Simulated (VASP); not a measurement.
# Normal strain, in-plane stress and strain energy of cubic BP under biaxial (001) strain up to ±2 % with LDA

A clamped BP membrane for a mechanical resonator needs high tension, but the tension also stores energy that can drive a crack. The brief chosen here is a (001) membrane 100 nm thick under equal biaxial tension. Its in-plane stress is to be at least 3 GPa and its stored energy at most 5 J/m², and its stress is to stay within 5 % of the linear law, so that the tension can be set from the strain alone. Both faces are free, which matches the condition of zero normal stress used in the calculation. Strains and energies are measured from the crystal relaxed with LDA, and tension counts as positive.

## Computational details

The start is a typed prototype cell. The crystal was relaxed with LDA. Equal strain is imposed in the (001) plane; the strain along the normal is adjusted until the normal stress vanishes, and the atoms are relaxed with LDA. VASP 6.6.1, plane waves with PAW, cutoff 480 eV, no spin polarisation, no spin-orbit coupling, k mesh 11×11×11, static lattice.

Notes on method and selection:

- Runs that did not converge, have known faults or may not be shown are not listed, and runs on Ansatz's PAW sets soft_1 and soft_2 are kept to separate tables.

Columns:

- strain (%): strain in the plane (tension positive).
- gap (eV): band gap on the k mesh at LDA.
- normal strain (%): strain along the normal.
- stress (GPa): in-plane stress, tension positive.
- strain energy (meV/atom): energy per atom above the relaxed crystal.

## Data

```
member  strain (%)  gap (eV)  normal strain (%)  stress (GPa)  strain energy (meV/atom)
−2 %    −2.0        0.906     0.938              −8.64         11.97
−1.5 %  −1.5        0.975     0.703              −6.37         6.69
−1 %    −1.0        1.042     0.469              −4.18         2.97
−0.5 %  −0.5        1.109     0.235              −2.05         0.75
0 %     0.0         1.176     0.000              0.00          0.00
+0.5 %  0.5         1.079     −0.233             1.98          0.67
+1 %    1.0         0.983     −0.468             3.89          2.72
+1.5 %  1.5         0.888     −0.703             5.73          6.11
+2 %    2.0         0.794     −0.940             7.51          10.80
```

normal strain (%) against strain (%):

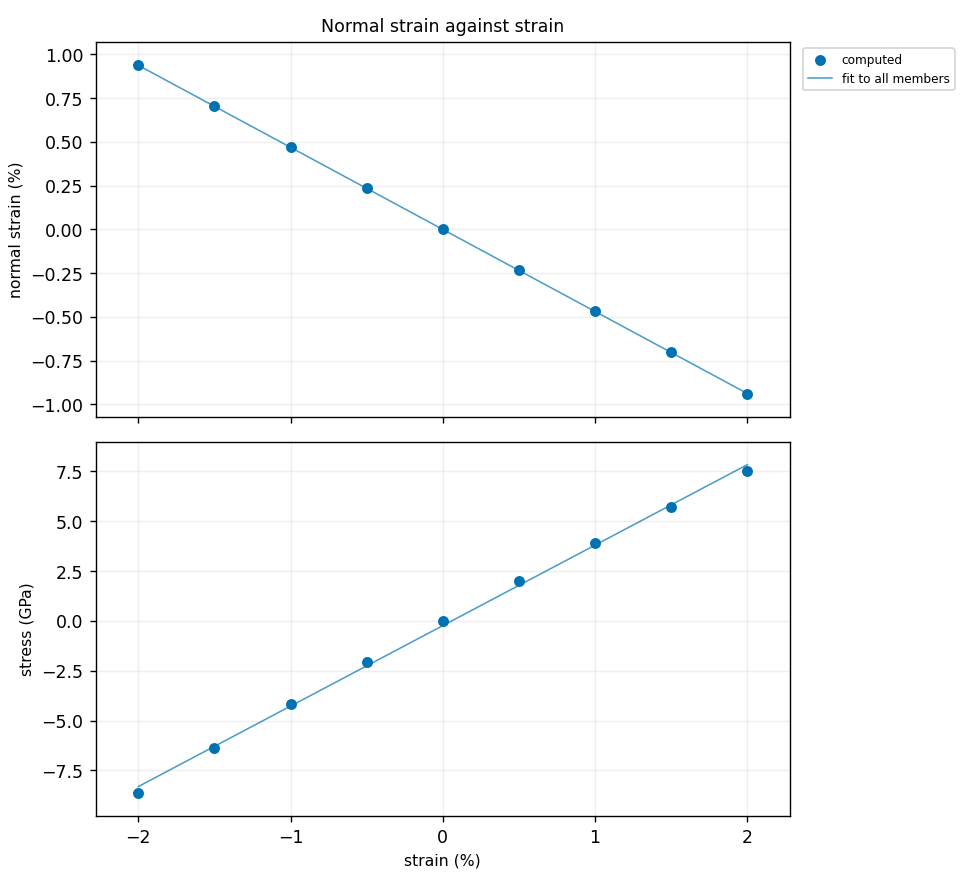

Least-squares fits to the whole series, with x = strain (%); R² and errors in the fitted variable (y, or ln y where the fit is in ln y):

```
y                  members  fit                          R²    rms residual  leave-one-out rms  the same for the mean of the others
normal strain (%)  9        y = 1.1111×10⁻⁴ − 0.46907 x  1.00  9.3×10⁻⁴      0.0013             0.68
stress (GPa)       9        y = −0.2367 + 4.036 x        1.00  0.21          0.30               5.9
```

## Why the values move as they do

The normal strain is −0.469 times the in-plane strain. In a cubic crystal with zero normal stress this ratio is −2C₁₂/C₁₁, so C₁₂/C₁₁ = 0.469 / 2 = 0.2345.

The initial slope of the stress is the biaxial modulus M. The ±1 % rows give (3.89 + 4.18) / 0.02 = 403.5 GPa. With M = C₁₁ + C₁₂ − 2C₁₂²/C₁₁, the ratio M/C₁₁ is 1 + 0.2345 − 2 × 0.2345 × 0.2345 = 1.1245, so C₁₁ = 403.5 / 1.1245 = 359 GPa and C₁₂ = 0.2345 × 359 = 84 GPa. The bulk modulus is (359 + 2 × 84) / 3 = 176 GPa, and Young's modulus along [100], C₁₁ − 2C₁₂²/(C₁₁ + C₁₂), is 359 − 2 × 84 × 84 / (359 + 84) = 327 GPa. C₄₄ does not enter this deformation. The tetragonal symmetry keeps both atoms on their ideal sites, so these moduli contain no contribution from internal displacement.

The small C₁₂/C₁₁ reflects stiff bond angles. If only bond stretching cost energy, the bonds would rotate at fixed length, and the normal strain would be −2 times the in-plane strain. Resistance to bending prevents most of that rotation, so the bonds stretch by about (2 − 0.469) / 3 = 0.51 of the in-plane strain.

The stress is not quite linear. The ±1 % rows give a linear coefficient of (3.89 + 4.18) / 2 = 4.035, and the ±2 % rows give a quadratic one of (7.51 − 8.64) / 8 = −0.141. With x the strain in %, σ = 4.035 x − 0.141 x² (GPa) reproduces all nine rows to about 0.01 GPa, whereas the straight line misses by 0.21 GPa rms. The ratio of stress to strain therefore falls by a fraction 0.141 / 4.035 = 0.035 of M per 1 % of tension and rises as much under compression. This is the usual anharmonicity of a bond, which is softer when stretched than when compressed.

The strain energy per atom is close to VMε², with V the volume per atom. The mean of the ±1 % energies is (2.72 + 2.97) / 2 = 2.845 meV. With 1 meV/Å³ = 0.1602 GPa, this gives V = 2.845 × 0.1602 / (403.5 × 0.0001) = 11.3 Å³, and the ±2 % pair gives the same value.

## Members off the line

Largest departures from the fit to the whole series:

```
member  normal strain (%)  fit     computed − fit  in rms residuals
+2 %    −0.940             −0.938  −0.002          2.1
+0.5 %  −0.233             −0.234  +0.001          1.5
+1 %    −0.468             −0.469  +0.001          1.0
−1.5 %  0.703              0.704   −0.001          0.8
```

No row leaves the trend in normal strain; the largest departure, 0.002 % strain at +2 %, is too small to interpret. The straight-line fit to the stress has an intercept of −0.24 GPa although the relaxed crystal is free of stress. That intercept comes from forcing a line through a curve.

A finer mismatch appears in the energy. The work done by the in-plane stress is dE = 2V(1 + ε)(1 + εₙ)σ dε, with V the relaxed volume per atom, ε the in-plane strain and εₙ the normal strain. Integrated from −2 % to +2 %, it predicts an energy change of about −0.9 meV/atom, while the table gives 10.80 − 11.97 = −1.17 meV/atom. A constant offset of about 0.06 GPa, equal in all directions, between the computed stress and the slope of the energy would account for the difference. Its sign fits the incomplete plane-wave basis, which makes a crystal relaxed on its stress slightly too small. The offset is under 1 % of the stress at ±2 %, so the rows remain usable.

The gap falls for both signs of strain. This kink is electronic: strain splits band edges that are degenerate in the cubic crystal.

## Meeting the brief

The four compressed rows are excluded because a thin membrane would buckle, and the unstrained row carries no tension. Four tensile rows remain.

The stored energy per area is w = E t / V, with E the strain energy per atom, t = 100 nm and V = 11.3 Å³. The factor 0.1602 again converts meV/Å³ to GPa, and 1 GPa·nm = 1 J/m². For +1 %, w = 2.72 / 11.3 × 0.1602 × 100 = 3.9 J/m². The other rows give 0.67 / 11.3 × 0.1602 × 100 = 0.95 J/m² at +0.5 %, 6.11 / 11.3 × 0.1602 × 100 = 8.7 J/m² at +1.5 % and 10.80 / 11.3 × 0.1602 × 100 = 15.3 J/m² at +2 %.

The linear law is 4.035 GPa per 1 % strain, and the brief allows a fractional shortfall of 0.05. The shortfall is 1 − 1.98 / (0.5 × 4.035) = 0.019 at +0.5 %, 1 − 3.89 / 4.035 = 0.036 at +1 %, 1 − 5.73 / (1.5 × 4.035) = 0.053 at +1.5 % and 1 − 7.51 / (2 × 4.035) = 0.069 at +2 %.

The +0.5 % row fails on stress, with 1.98 GPa against the required 3 GPa. The +1.5 % and +2 % rows fail on both energy and linearity. **The pick is +1 %**, with a stress of 3.89 GPa, or a tension of 3.89 × 100 = 389 N/m along each edge.

LDA moduli of covalent crystals are commonly within about 5 % of experiment. Even with 10 % allowed, the stress stays above 3.89 × 0.9 = 3.5 GPa and the energy below 3.9 × 1.1 = 4.3 J/m², so the pick stands. The quadratic stress law and the energy formula leave room for a clamping error: strains from about 0.8 % to 1.1 % also meet the brief.

The runner-up is +1.5 %. At half the thickness its stored energy drops to 8.7 / 2 = 4.3 J/m², and it would then qualify if the linearity limit were relaxed from 5 % to 6 %. It would offer 5.73 GPa, although the thinner membrane would carry less total tension, 5.73 × 50 = 287 N/m.

The pick would be overturned by a fracture strength below 3.9 GPa. Strength depends on flaws and edges, which a perfect periodic crystal does not contain.

## Closing remarks

Up to ±2 %, the normal strain can be taken as linear. The stress follows the linear law within 4 % up to ±1 % and within about 7 % at ±2 %; one quadratic term removes nearly all of that error.

No omitted bulk effect is expected to rival the full span of the stress column, but two are comparable with its curvature. Lattice vibrations, including zero-point motion, should lower the moduli by a few percent. The LDA error is also a few percent, more often towards too stiff a crystal. For a real membrane, flaws matter more, since they can cause fracture well before the perfect crystal would fail.

[Logs are printed without paths, hosts, clocks, repeated set-up lines and the standing remarks that a program may print on its own settings, such as how far it seeks lower states.]
